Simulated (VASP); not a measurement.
# Conduction levels of zincblende CuI at Γ, X and L from LDA to hybrid functionals

A common rule of thumb says that a better functional lifts the conduction bands of a semiconductor rigidly, so that a cheap band structure needs only one added constant, the scissors shift. We test this on CuI in the zincblende structure (F-43m), a transparent p-type conductor. If the rule fails, a correction fitted to the gap at Γ misplaces the side valleys, which matter for hot-electron transport and for absorption above the gap. We compare the lowest empty levels at Γ, X and L, each measured from the valence-band top of the same run, in one fixed cell. The differences between functionals therefore contain no change of bond length. One setting does differ: aspherical gradient terms inside the PAW spheres are included for the meta-GGA and hybrid rows, but not for LDA, PBE and BLYP. For BLYP only the Γ level is given, and we estimate its X level.

## Method

A cell from a diffraction database, the same for all rows. VASP 6.6.1, plane waves with PAW, cutoff 400 eV, no spin polarisation, no spin-orbit coupling. Levels are read at the symmetry points of a band path, from the valence-band top. EpsX marks an unscreened share α = 1/ε∞ of exact exchange, here 0.155. For all rows, k mesh: 4×4×4. All levels use the PAW data sets made with PBE.

Notes on method and selection:

- A valley minimum can lie off the symmetry point and below the level at it.
- Spin-orbit coupling is left out; it raises the valence-band top and so lowers all three levels by about the same amount.
- Runs that did not converge, have known faults or may not be shown are not listed, and runs on Ansatz's PAW sets soft_1 and soft_2 are kept to separate tables.

Columns:

- Γ valley (eV): lowest empty level at Γ.
- X valley (eV): lowest empty level at X.
- L valley (eV): lowest empty level at L.
- X − Γ (eV): level at X less level at Γ.

Input lines of one member:

```
PREC = Accurate
ENCUT = 400
EDIFF = 1E-06
NELM = 100
ISMEAR = 0
SIGMA = 0.02
LREAL = .FALSE.
ALGO = Normal
GGA = CA
NBANDS = 21
LORBIT = 11
KPAR = 4
```

Command (options for logging and memory left out): `mpirun -np 4 vasp_std`

## The series

```
member               Γ valley (eV)  X valley (eV)  L valley (eV)  X − Γ (eV)
LDA                  0.98           2.59           2.04           1.62
PBE                  1.14           2.71           2.15           1.57
BLYP                 1.21           ?              ?              ?
r2SCAN               1.61           2.93           2.54           1.33
TB-mBJ               2.20           3.23           2.95           1.03
HSE03                2.38           3.68           3.37           1.31
PBE-EpsX (α = 0.15)  2.47           3.87           3.48           1.41
HSE06                2.61           3.91           3.61           1.30
PBE0                 3.29           4.59           4.30           1.30
r2SCAN0              3.60           4.74           4.59           1.15
```

Cells marked ? are withheld until the estimate has been made.

X valley (eV) against Γ valley (eV), members shown:

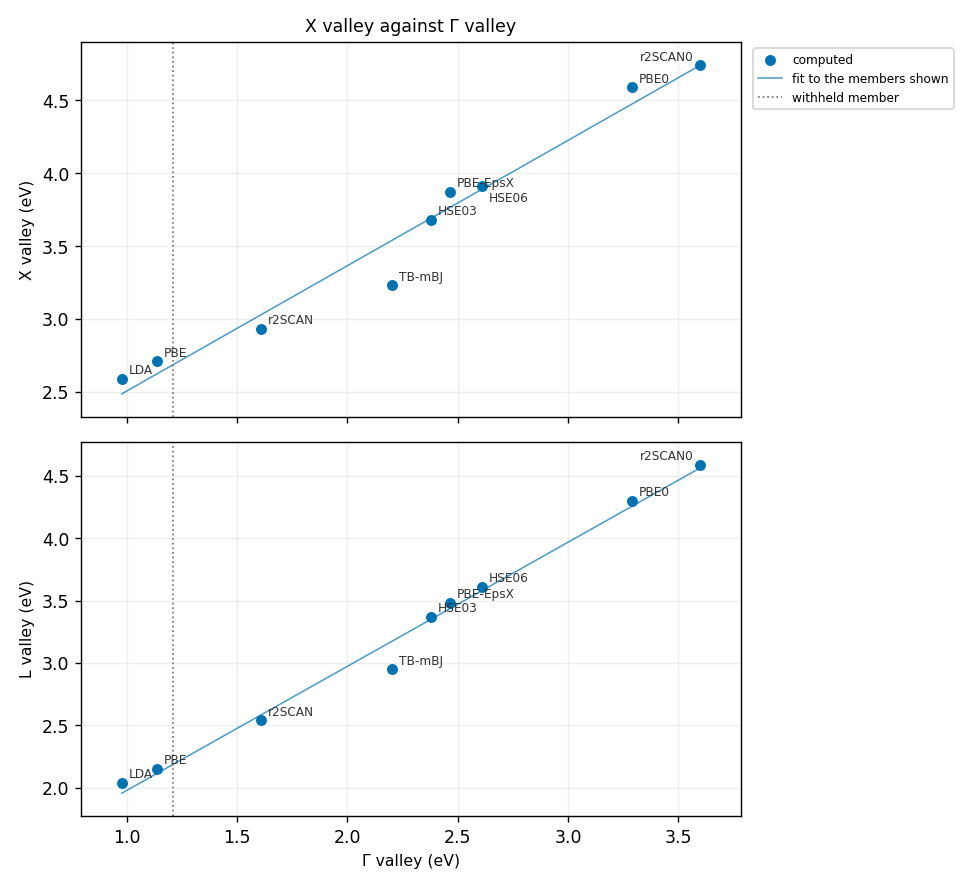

Least-squares fits to the members shown, with x = Γ valley (eV); R² and errors in the fitted variable (y, or ln y where the fit is in ln y):

```
y              members  fit                    R²    rms residual  leave-one-out rms  the same for the mean of the others
X valley (eV)  9        y = 1.645 + 0.8604 x   0.97  0.13          0.15               0.83
L valley (eV)  9        y = 0.9833 + 0.9951 x  0.99  0.085         0.10               0.95
```

## The trend and its physics

The order does not change among the nine complete members: Γ is lowest, then L, then X. The spacing does change. From PBE to PBE0 the levels at Γ and L both rise by 2.15 eV, while X rises by 4.59 − 2.71 = 1.88 eV. The fits against the Γ level say the same, with a slope of 0.995 for L and 0.860 for X. A scissors shift thus serves well for L and less well for X.

Much of the common rise is expected from exact exchange, which reduces self-interaction and lowers the valence top, built from Cu 3d and I 5p, relative to the empty states. A shift of the valence top cancels in X − Γ, so the narrowing of that difference from 1.57 eV in PBE to 1.30 eV in PBE0 comes from the empty levels themselves. A possible reason is their different orbital make-up: the Γ level is s-like, whereas symmetry lets p and d character mix in at X. This is not a full explanation, since such mixing is also allowed at L, which follows Γ closely.

The share and the range of exact exchange act differently. With $\alpha$ = 0.155 instead of the one quarter that defines PBE0, a linear response gives X − Γ = 1.57 − (1.57 − 1.30) × 0.155 / 0.25 = 1.40 eV, against 1.41 eV in the table. Extending the range at a fixed share, from HSE03 through HSE06 to PBE0, lifts Γ and X by 0.91 eV each and leaves their separation at 1.30 to 1.31 eV. The long-range part of exchange varies slowly in space and mainly separates filled from empty states, hence the nearly rigid shift.

TB-mBJ departs most from the rule. Its X − Γ is only 1.03 eV, and its L level lies 2.95 − 2.20 = 0.75 eV above Γ, against 0.93 to 1.06 eV in the other members. Its local potential was designed to open gaps, which does not ensure correct valley spacings.

L and X come closest in r2SCAN0, 0.15 eV apart; a minimum lying off the symmetry point could alter the order of the true valleys there.

## An estimate before looking

Plain estimates from the members shown:

- BLYP, fit at x = 1.21: 2.69 eV
- BLYP, straight-line interpolation between PBE and r2SCAN: w = (1.21 − 1.14) / (1.61 − 1.14) = 0.149, so 2.71 + 0.149 × (2.93 − 2.71) = 2.74 eV

BLYP has its Γ level at 1.21 eV, only 0.07 eV above PBE. The fit over all members gives 2.69 eV for X, but it runs too low at this end: at the Γ level of PBE it gives 1.645 + 0.8604 × 1.14 = 2.63 eV, where the table has 2.71 eV. We therefore use the straight line between the neighbours PBE and r2SCAN, which gives 2.74 eV.

The same route can be tried on PBE itself, from LDA and r2SCAN: 2.59 + (1.14 − 0.98) / (1.61 − 0.98) × (2.93 − 2.59) = 2.68 eV, a miss of 0.03 eV. Repeated for every inner member except TB-mBJ, it has an rms miss of 0.07 eV, which we take as the error. TB-mBJ, estimated from r2SCAN and HSE03, is missed by 2.93 + (2.20 − 1.61) / (2.38 − 1.61) × (3.68 − 2.93) − 3.23 = 0.27 eV. It is left out of the error figure because it models the potential directly, whereas BLYP is an ordinary gradient-corrected functional like PBE.

That kinship might argue for following the step from LDA to PBE instead of leaning towards r2SCAN. This would give 2.71 + 0.07 × 0.12 / 0.16 = 2.76 eV, a change well inside the error, so we apply no further shift. On this estimate X − Γ in BLYP is 2.74 − 1.21 = 1.53 eV, close to the PBE spacing.

**Committed estimate, BLYP: X valley = 2.74 ± 0.07 eV.**

## Check

```
member  Γ valley (eV)  X valley (eV)  L valley (eV)  X − Γ (eV)
BLYP    1.21           2.88           2.21           1.67
```

```
member  estimate       X valley (eV)  computed  estimate − computed  miss in error bars
BLYP    committed      2.74           2.88      −0.14                2.0
BLYP    fit            2.69           2.88      −0.19
BLYP    interpolation  2.74           2.88      −0.14
```

X valley (eV) against Γ valley (eV):

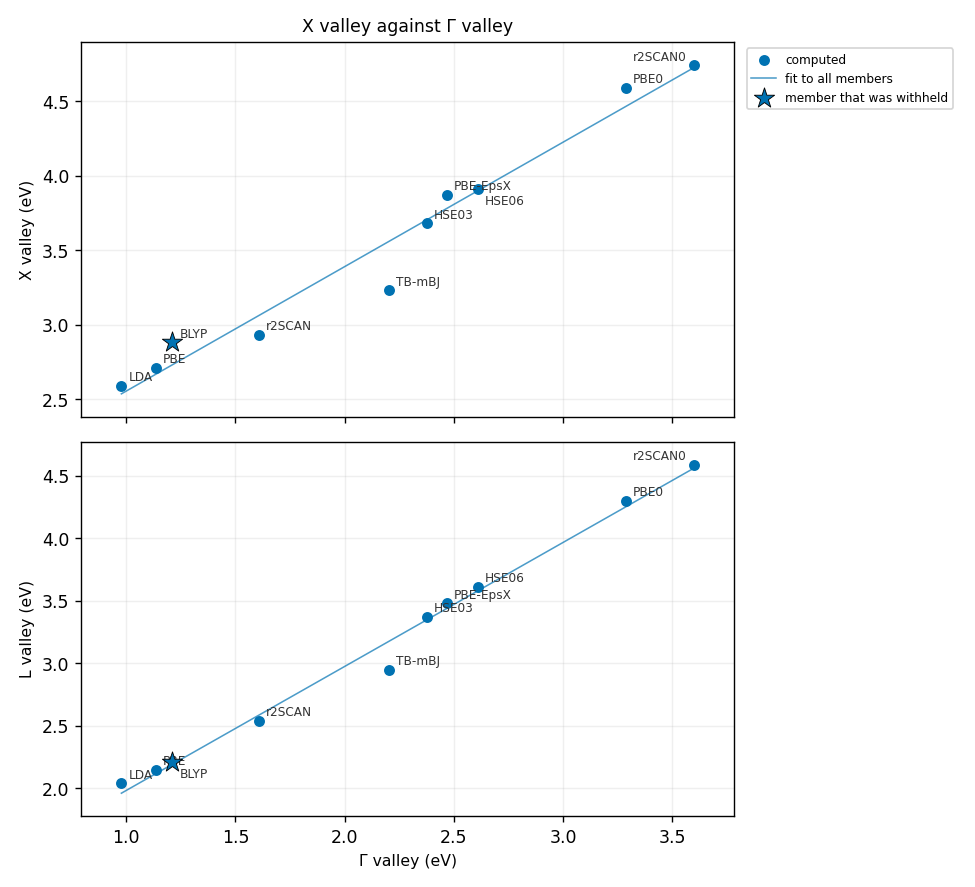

BLYP puts the X level at 2.88 eV. Our 2.74 eV is too low by 0.14 eV, or 2.0 error bars. It equals the plain interpolation and is slightly better than the fit, which misses by 0.19 eV.

We were right that the fit runs low at this end. What failed was the assumption that BLYP would space its valleys like PBE. From PBE to BLYP the levels at Γ and L rise by 0.07 and 0.06 eV, but X rises by 0.17 eV, and X − Γ becomes 1.67 eV, the largest in the series. A shift of the valence top cancels in this difference, so the change of functional moves the empty levels relative to each other, even without exact exchange.

The error bar was also too narrow. We had left TB-mBJ out of the trial because of its unusual potential; with its miss of 0.27 eV included, the rms would have been 0.12 eV.

## Residuals

Least-squares fits to the whole series, with x = Γ valley (eV); R² and errors in the fitted variable (y, or ln y where the fit is in ln y):

```
y              members  fit                    R²    rms residual  leave-one-out rms  the same for the mean of the others
X valley (eV)  10       y = 1.718 + 0.8355 x   0.97  0.13          0.16               0.81
L valley (eV)  10       y = 0.9918 + 0.9922 x  0.99  0.080         0.094              0.95
```

Largest departures from the fit to the whole series:

```
member  X valley (eV)  fit   computed − fit  in rms residuals
TB-mBJ  3.23           3.56  −0.33           2.5
BLYP    2.88           2.73  +0.15           1.1
r2SCAN  2.93           3.06  −0.13           1.0
PBE0    4.59           4.47  +0.12           0.9
```

TB-mBJ stands out, with X 0.33 eV below the fit, or 2.5 rms residuals. Its L level is also low for its Γ level, by 0.99 + 0.992 × 2.20 − 2.95 = 0.22 eV. Both signs fit a potential that lifts the s-like state at Γ more than the states at X and L. The dependence of this potential on the kinetic-energy density may be responsible, since r2SCAN, which shares that ingredient, also lies low, by 0.13 eV. In the same direction, X − Γ is 0.15 eV smaller in r2SCAN0 than in PBE0.

BLYP (+0.15 eV) and PBE0 (+0.12 eV) are within the ordinary scatter. For PBE0 the sign is understandable: long-range exchange lifts Γ and X equally, whereas the fitted line allows X only 0.84 eV per eV at Γ. For BLYP, the use of PAW data sets made with PBE may contribute.

The aspherical gradient terms, absent in PBE but present in the hybrids, seem to matter little here. Interpolating X between PBE and PBE0 to $\alpha$ = 0.155 gives 2.71 + 1.88 × 0.155 / 0.25 = 3.88 eV, against 3.87 eV computed. This is only an indirect test, since PBE0 contains the terms too and the response to $\alpha$ is assumed to be linear.

## Conclusions

The order Γ, L, X holds in all ten members, but the valleys do not move rigidly together: X − Γ ranges from 1.03 to 1.67 eV. For another functional in this cell, the Γ level gives L to about 0.09 eV and X to about 0.16 eV, by the leave-one-out errors.

In practice, a PBE band structure shifted to the Γ level of PBE0 has L in the right place but X at 2.71 + 2.15 = 4.86 eV, which is 4.86 − 4.59 = 0.27 eV above the PBE0 result. Starting from HSE06 is safer, because a constant 3.29 − 2.61 = 0.68 eV reproduces the PBE0 levels at all three points to 0.01 eV.

Spin-orbit coupling, left out here, would matter for an absolute gap but should nearly cancel in the valley spacings, because its main effect is to raise the common reference, the valence-band top.

[Logs are printed without paths, hosts, clocks, repeated set-up lines and the standing remarks that a program may print on its own settings, such as how far it seeks lower states.]
